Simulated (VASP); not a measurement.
# Born effective charge of Zn and TO frequency of zinc-blende ZnS from finite displacements at LDA

In zinc-blende ZnS each zinc atom sits in a tetrahedron of four sulphur atoms, with a filled 3d shell and polar bonds that are neither fully ionic nor fully covalent. The five members are this one crystal with the zinc atom shifted by up to 0.04 Å either way. I ask how much charge the shift effectively carries, and how stiffly the lattice resists it. The first number governs how the crystal couples to infrared light, the second the frequency at which it does so. Dipole and energy are both counted per primitive cell from the undistorted crystal, and I check the charge against linear response in the same program and cell.

## How the numbers were made

One crystal, ZnS (zinc-blende) (known phase), at LDA, in its primitive cell of 2 atoms and 39.45 Å³, as in the database entry, not relaxed (pressure -4.4 GPa). Program: VASP 6.6.1, plane waves and PAW (data sets made for PBE of release 64), scalar-relativistic without spin-orbit coupling, no spin polarisation. Cutoff 400 eV; on the k meshes the divisions times the cell-vector length are 30 Å or more. Occupations: Gaussian smearing of 0.01 eV.

- displacement (Å): displacement of the Zn atom along the Cartesian y axis, all other atoms and the cell fixed.
- ionic part (e·Å): ionic part: the valence charge of the Zn data set (12 e) times the displacement.
- gap (eV): Kohn-Sham gap on the k mesh.
- total dipole (e·Å): change of the total dipole per cell along that axis, ionic plus electronic.
- electronic part (e·Å): electronic part from the Berry phase, on one continuous branch.
- energy (meV): energy per cell against the undistorted crystal.

Input lines of one member:

```
PREC = Accurate
ENCUT = 400
EDIFF = 1E-08
NELM = 100
ISMEAR = 0
SIGMA = 0.01
LREAL = .FALSE.
ALGO = Normal
GGA = CA
NBANDS = 15
LCALCPOL = .TRUE.
DIPOL = 0.125 0.125 0.125
```

Command (options for logging and memory left out): `vasp_std`

## Data

| member | displacement (Å) | ionic part (e·Å) | gap (eV) | total dipole (e·Å) | electronic part (e·Å) | energy (meV) |
| --- | --- | --- | --- | --- | --- | --- |
| u = −0.04 Å | −0.04 | −0.48 | 1.848 | −0.0799 | 0.4001 | 4.40 |
| u = −0.02 Å | −0.02 | −0.24 | 1.864 | −0.0399 | 0.2001 | 1.10 |
| u = +0 Å | 0.00 | 0.00 | 1.882 | 0.0000 | 0.0000 | 0.00 |
| u = +0.02 Å | 0.02 | 0.24 | 1.864 | 0.0399 | −0.2001 | 1.10 |
| u = +0.04 Å | 0.04 | 0.48 | 1.848 | 0.0799 | −0.4001 | 4.40 |

total dipole (e·Å) against displacement (Å):

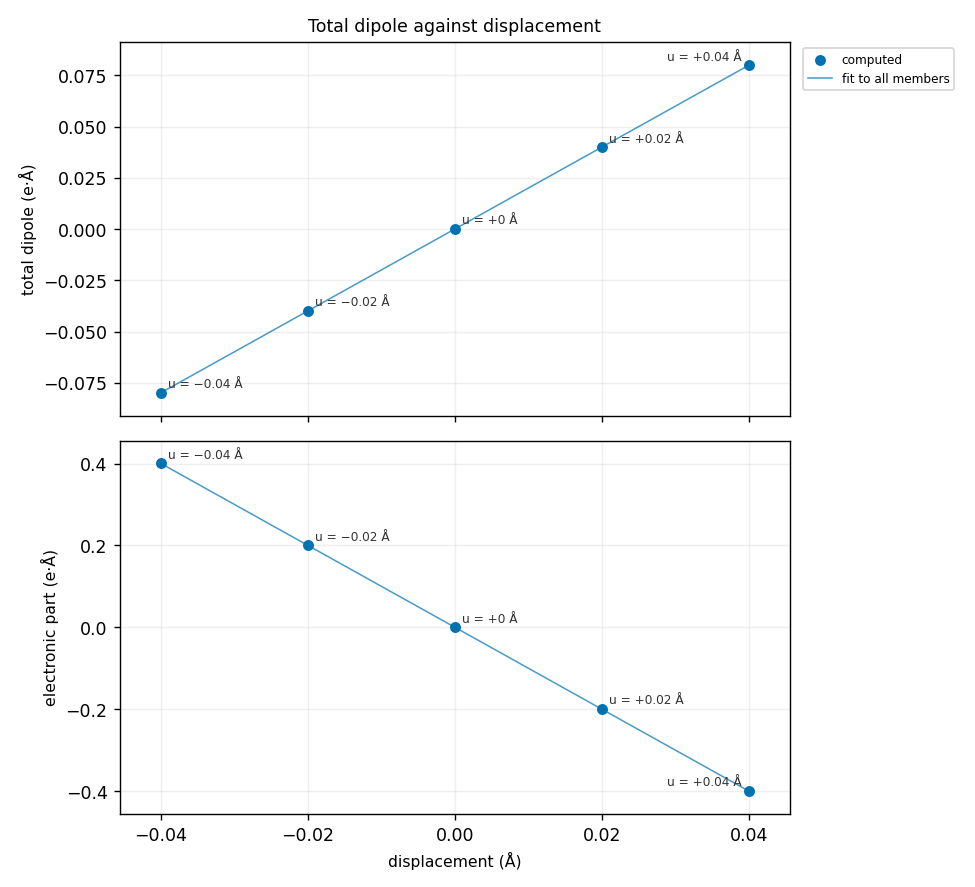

Least-squares fits to the whole series, with x = displacement (Å); R² in the fitted variables, residuals in the unit of y:

| y | members | fit | R² | rms residual | leave-one-out rms | standard deviation of y |
| --- | --- | --- | --- | --- | --- | --- |
| total dipole (e·Å) | 5 | y = 2.291×10⁻¹⁸ + 1.997 x | 1.00 | 2.8×10⁻⁵ | 4.8×10⁻⁵ | 0.063 |
| electronic part (e·Å) | 5 | y = −5.9518×10⁻¹⁸ − 10.003 x | 1.00 | 2.8×10⁻⁵ | 4.8×10⁻⁵ | 0.32 |

## Interpretation

The total dipole rises in proportion to the displacement, with a slope of 1.997 e, and the energy rises as its square.

Both laws follow from a short expansion. I assume that $u$ is small, that the macroscopic field is zero, and that the cell keeps its shape. The last assumption suits an optical vibration, which is too fast for the lattice to shear in response to the stress that accompanies $u$. A twofold axis through the zinc site turns $+y$ into $-y$, so the energy can hold only even powers of $u$ and the dipole along $y$ only odd ones. The leading terms are

$$\Delta D = Z^* u, \qquad \Delta E = \tfrac{1}{2} k u^2 .$$

Only the relative displacement of the two sublattices matters, so moving zinc alone gives the same $k$ as the true mode, in which both atoms move. The kinetic energy of that mode is $\tfrac{1}{2}\mu \dot u^2$ with $\mu$ = 21.517 u, and therefore $\omega_{\mathrm{TO}}^2 = k/\mu$.

The slope is a sum of 12 from the ionic part and −10.003 from the electronic part. The natural reading is that the ten 3d electrons travel with the zinc core, while the centre of the eight bonding electrons hardly moves. That need not mean that these electrons belong to sulphur alone. If each bond pair kept its fractional position along the bond, it would be dragged part of the way with zinc and the charge would fall below 2. Against this, a shortened bond becomes less polar and a stretched one more polar, which shifts electrons opposite to the zinc motion and raises the charge. The columns show only the sum of the two effects, which is close to zero. A Born charge near the formal +2 is thus no measure of ionicity.

## The model against the table

I fix the model on u = +0 Å, which sets both zeros, and on u = +0.04 Å, where rounding matters least:

$Z^*$ = 0.0799 / 0.04 = 1.9975 e

$k$ = 2 × 4.40 / 0.04² = 5500 meV/Å², which is 5500 / 1000 = 5.50 eV/Å²

For the other three members this gives:

- **u = +0.02 Å:** the dipole is 1.9975 × 0.02 = 0.03995 e·Å (table 0.0399), and the energy is 0.5 × 5500 × 0.02² = 1.10 meV (table 1.10).
- **u = −0.02 Å:** the dipole is 1.9975 × (−0.02) = −0.03995 e·Å (table −0.0399), and the energy is again 1.10 meV (table 1.10).
- **u = −0.04 Å:** the dipole is 1.9975 × (−0.04) = −0.0799 e·Å (table −0.0799), and the energy is 0.5 × 5500 × 0.04² = 4.40 meV (table 4.40).

The last member agrees by symmetry alone. The real test is the halved displacement, and there the model holds to within rounding.

With $k$ in eV/Å² and $\mu$ in u, the wavenumber is $\tilde\nu \approx 520\,\sqrt{k/\mu}$ cm⁻¹, where the rounded prefactor only converts units. The TO frequency is then 520 × √(5.50 / 21.517) = 263 cm⁻¹, or about 260 cm⁻¹. The restoring forces on the displaced atom, also computed, offer a second route to $k$.

Linear response gives 2.00 e for the Born charge, the same as the Berry phase after rounding. This confirms the numerical procedure but not the functional, since both routes carry the same LDA error, which for Born charges is usually a few per cent.

## Where the trend breaks

Largest departures from the fit to the whole series:

| member | total dipole (e·Å) | fit | computed − fit | in rms residuals |
| --- | --- | --- | --- | --- |
| u = −0.02 Å | −0.0399 | −0.0399 | 0.0000 | 1.4 |
| u = +0.02 Å | 0.0399 | 0.0399 | 0.0000 | 1.4 |
| u = −0.04 Å | −0.0799 | −0.0799 | 0.0000 | 0.7 |
| u = +0.04 Å | 0.0799 | 0.0799 | 0.0000 | 0.7 |

Neither law breaks within this range. The largest departure of the dipole from the fitted line, 1.4 × 0.000028 = 0.00004 e·Å, is smaller than half the last printed digit, so I read no physics into it.

The gap behaves differently. It falls by 1.882 − 1.864 = 0.018 eV at 0.02 Å and by 1.882 − 1.848 = 0.034 eV at 0.04 Å. A quadratic law fixed on the smaller shift would give 4 × 0.018 = 0.072 eV at the larger one, which is 0.038 eV too much. What fails for the gap is the assumption of a smooth expansion about $u = 0$. Without spin-orbit coupling the top of the valence band is threefold degenerate, and the displacement splits it in first order, so the uppermost level rises with $|u|$. The total energy has no such kink, because all three levels are filled and their first-order shifts cancel.

## Summary

For the displacements shown, up to 0.04 Å, one charge of 1.9975 e and one force constant of 5.50 eV/Å² reproduce every dipole and energy to within rounding.

One effect left out of the TO estimate of about 260 cm⁻¹ is far larger than that rounding. The pressure of −4.4 GPa means that LDA would contract this cell. Shorter, stiffer bonds would raise the TO frequency, by roughly 5 to 10 % if the crystal responds like a typical tetrahedral semiconductor. The LO mode is a separate matter: its macroscopic field, absent from the TO mode, adds a further restoring force and puts the LO frequency above the TO one by some tens of cm⁻¹, again a rough size. The Born charge and the electronic dielectric constant from linear response together fix that splitting.

[Logs are printed without paths, hosts, clocks, repeated set-up lines and the standing remarks that a program may print on its own settings, such as how far it seeks lower states.]

[On method and selection: Runs that did not converge, have known faults or may not be shown are not listed, and runs on Ansatz's PAW sets soft_1 and soft_2 are kept to separate tables.]
